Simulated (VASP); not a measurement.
# Splitting of the conduction valleys of GaP under biaxial (001) strain, at TB-mBJ with spin-orbit coupling on LDA cells

Every member is gallium phosphide, with each Ga atom bonded to four P atoms and each P atom to four Ga atoms; only the dimensions of the cell, and with them its shape and volume, change along the series. In the unstrained cubic crystal the conduction band has equivalent minima along the three cube axes. Strain in the (001) plane makes the normal axis different from the other two. This memo reports how far the valleys then separate and which is lowest, which decides where electrons collect in a strained layer and which effective masses govern transport. The splitting is the [100] valley less the [001] valley, so a positive value means that [001] is lower. Single levels are counted from the valence-band top at the zone centre.

## Set-up

The start is a typed prototype cell. The crystal was relaxed with LDA. Equal strain is imposed in the (001) plane; the strain along the normal is adjusted until the normal stress vanishes, and the atoms are relaxed with LDA. VASP 6.6.1, plane waves with PAW, cutoff 450 eV, no spin polarisation. Band edges are single points at TB-mBJ with spin-orbit coupling on these cells, k mesh 8×8×8, read on short lines of k points at the zone centre and through the valleys; energies are counted from the valence-band top at the zone centre.  All levels use the PAW data sets made with LDA.

Notes on method and selection:

- A valley's energy from the valence-band top holds the shift of that top as well as the shift of the valley.
- The TB-mBJ parameter c is fixed anew from the density of each cell, so it changes along the series.
- Runs that did not converge, have known faults or may not be shown are not listed, and runs on Ansatz's PAW sets soft_1 and soft_2 are kept to separate tables.

Columns:

- strain (%): strain in the plane (tension positive).
- splitting (eV): valley along [100] less valley along [001].
- Δ [001] (eV): minimum of the conduction band along Γ–X in the [001] direction.
- Δ [100] (eV): minimum of the conduction band along Γ–X in the [100] direction.
- L [111] (eV): conduction level at L along [111].
- Γ level (eV): lowest conduction level at Γ.

Input lines of one member:

```
PREC = Accurate
ENCUT = 450
EDIFF = 1E-06
NELM = 150
ISMEAR = 0
SIGMA = 0.02
LREAL = .FALSE.
ALGO = Normal
METAGGA = MBJ
LASPH = .TRUE.
LNONCOLLINEAR = .TRUE.
NBANDS = 28
GGA_COMPAT = .FALSE.
LSORBIT = .TRUE.
KPAR = 2
```

Command (options for logging and memory left out): `mpirun -np 2 vasp_ncl`

## Numbers

| member | strain (%) | splitting (eV) | Δ [001] (eV) | Δ [100] (eV) | L [111] (eV) | Γ level (eV) |
| --- | --- | --- | --- | --- | --- | --- |
| −2 % | −2.0 | −0.315 | 2.367 | 2.053 | 2.596 | 3.281 |
| −1.5 % | −1.5 | −0.238 | 2.351 | 2.113 | 2.620 | 3.260 |
| −1 % | −1.0 | −0.156 | 2.329 | 2.172 | 2.638 | 3.238 |
| −0.5 % | −0.5 | −0.079 | 2.309 | 2.231 | 2.649 | 3.214 |
| 0 % | 0.0 | 0.000 | 2.288 | 2.288 | 2.655 | 3.188 |
| +0.5 % | 0.5 | 0.080 | 2.220 | 2.299 | 2.611 | 3.116 |
| +1 % | 1.0 | 0.159 | 2.145 | 2.304 | 2.556 | 3.036 |
| +1.5 % | 1.5 | 0.240 | 2.068 | 2.308 | 2.497 | 2.956 |
| +2 % | 2.0 | 0.321 | 1.990 | 2.312 | 2.434 | 2.875 |

splitting (eV) against strain (%):

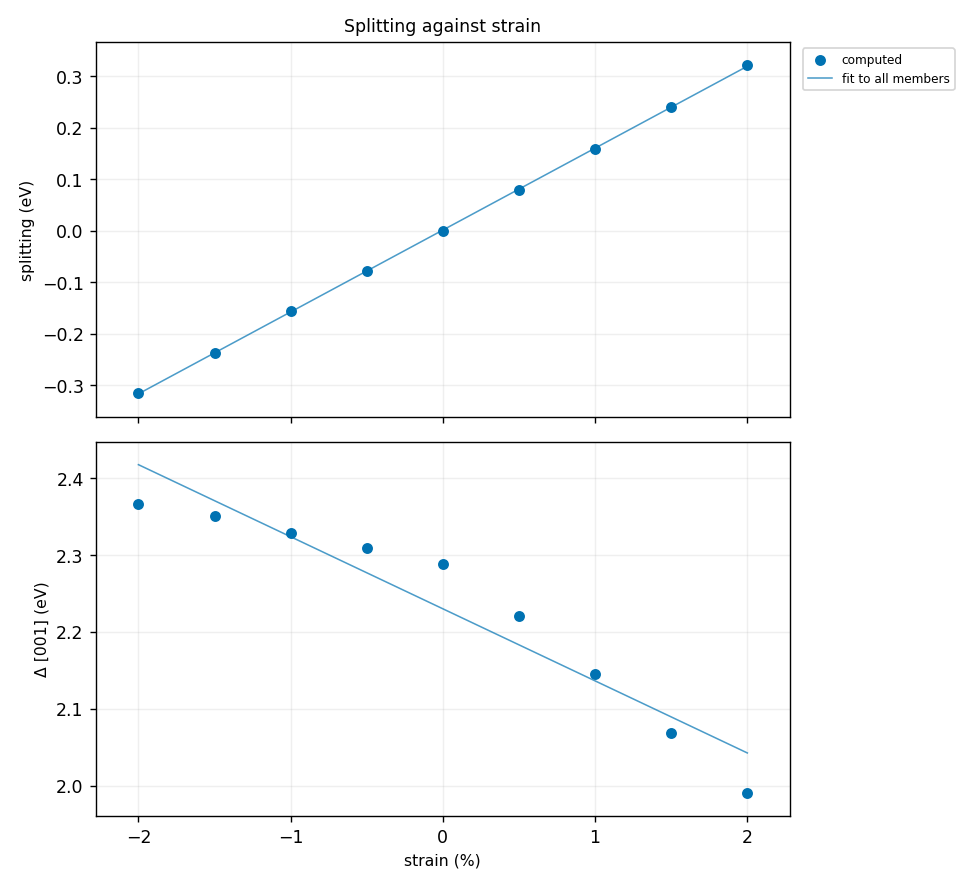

Least-squares fits to the whole series, with x = strain (%); R² and errors in the fitted variable (y, or ln y where the fit is in ln y):

| y | members | fit | R² | rms residual | leave-one-out rms | the same for the mean of the others |
| --- | --- | --- | --- | --- | --- | --- |
| splitting (eV) | 9 | y = 0.001333 + 0.1589 x | 1.00 | 0.0012 | 0.0017 | 0.23 |
| Δ [001] (eV) | 9 | y = 2.230 − 0.09380 x | 0.92 | 0.037 | 0.050 | 0.14 |

## Interpretation

Under tension the pair of valleys along [001] is lowest; under compression the four along [100] and [010] are. The splitting runs from −0.315 eV at −2 % to 0.321 eV at +2 %, and the fitted slope is 0.159 eV per percent of in-plane strain.

The deformation-potential formula for this splitting is $\Delta E = \Xi_u(\varepsilon_\parallel - \varepsilon_\perp)$, where $\varepsilon_\parallel$ is the strain in the plane, $\varepsilon_\perp$ the strain along the normal and $\Xi_u$ a positive constant. With the normal stress relaxed, the two strains have opposite signs and their effects add. Symmetry keeps both atoms at their ideal fractional positions, so no internal displacement contributes.

A plane-wave picture explains the positive sign. Near the zone boundary along [001], the lowest conduction state is built largely from waves that run in the (001) plane, of the type (110). Stretching the plane lengthens these waves and lowers their kinetic energy. For the [100] valley, one of the two wave components lies along the shortened normal; its rise in kinetic energy offsets most of the fall from the component in the plane. The kinetic part of the splitting is $2T(\varepsilon_\parallel - \varepsilon_\perp)$ with $T = \hbar^2(2\pi/a)^2/2m$, roughly 5 eV for a cube edge $a$ a little over 5 Å. If the normal strain is taken as about equal and opposite, 1 % of strain gives 2 × 5 × 0.02 = 0.2 eV, somewhat above the computed 0.159 eV; the estimate neglects the crystal potential.

The single valley energies behave less simply. From 0 to +2 % the [001] valley falls by 2.288 − 1.990 = 0.298 eV, but from 0 to −2 % it rises by only 2.367 − 2.288 = 0.079 eV. The reference is the reason: strain of either sign splits the valence-band top, and the uppermost state has a different character on the two sides. This shift is common to both valleys and cancels in their difference.

## Outliers

Largest departures from the fit to the whole series:

| member | splitting (eV) | fit | computed − fit | in rms residuals |
| --- | --- | --- | --- | --- |
| +2 % | 0.321 | 0.319 | +0.002 | 1.5 |
| −1 % | −0.156 | −0.158 | +0.002 | 1.3 |
| −2 % | −0.315 | −0.316 | +0.001 | 1.2 |
| 0 % | 0.000 | 0.001 | −0.001 | 1.1 |

No member stands apart in the splitting. The largest departure from the line, at +2 %, is 0.002 eV, which is too close to the printed rounding to carry a physical cause.

The straight line for the [001] valley is a different matter, with an rms residual of 0.037 eV. The unstrained member lies farthest from it, at 2.288 − 2.230 = 0.058 eV above. The two ends lie about 0.05 eV below. This is the mark of a bend at zero strain: whichever valence branch is uppermost is pushed up relative to the average of the split states, which reduces the valley energy on both sides.

Two straight pieces that meet at the unstrained member describe this valley better. Their slopes, taken from the end members, are −0.298 / 2 = −0.149 eV per percent in tension and −0.079 / 2 = −0.040 eV per percent in compression. The six intermediate members are then met within 0.007 eV, against an rms residual of 0.037 eV for the single line.

## Short exercises

**How much tension puts the [001] valleys 0.10 eV below the others, and does that empty the upper valleys at room temperature?**

The slope gives 0.10 / 0.159 = 0.63 %, between the members at +0.5 % (0.080 eV) and +1 % (0.159 eV). The thermal energy is roughly 0.026 eV. There are four upper valleys and two lower ones, all taken to have the same density-of-states mass, so the ratio of upper to lower population is 2 × exp(−0.10 / 0.026) = 0.04. About 4 % of the electrons remain in the upper valleys.

**Does a measured drop of the gap reveal the sign of the strain?**

No. The gap is the lower of the two valley energies. At +1 % it changes by 2.145 − 2.288 = −0.143 eV, and at −1 % by 2.172 − 2.288 = −0.116 eV. Both signs of strain reduce it by similar amounts, so the sign has to come from another observation, such as the lattice spacing along the normal.

**Can strain within this range make the gap direct?**

No. The Γ level lies above the lowest valley by 3.188 − 2.288 = 0.900 eV without strain and by 2.875 − 1.990 = 0.885 eV at +2 %. The gain from tension is only 0.900 − 0.885 = 0.015 eV. At −2 % the distance grows to 3.281 − 2.053 = 1.228 eV.

## Conclusions

Between −2 % and +2 % the splitting is proportional to strain, and its sign names the lowest valley: [001] in tension, [100] and [010] in compression. This result is firmer than the single valley energies, because both valleys share one valence-band top and, within each cell, one TB-mBJ parameter.

Lattice vibrations are left out; including them would lower the gap. The electron–hole attraction is also absent, and it would place the optical onset below the gap given here. LDA usually makes the cell slightly too small. In a semiconductor of this type, a larger cell would raise the valleys near the zone boundary and lower the Γ level, both relative to the valence-band top. An error in the LDA elastic response along the normal would change the slope of the splitting, but not its sign.

[Logs are printed without paths, hosts, clocks, repeated set-up lines and the standing remarks that a program may print on its own settings, such as how far it seeks lower states.]
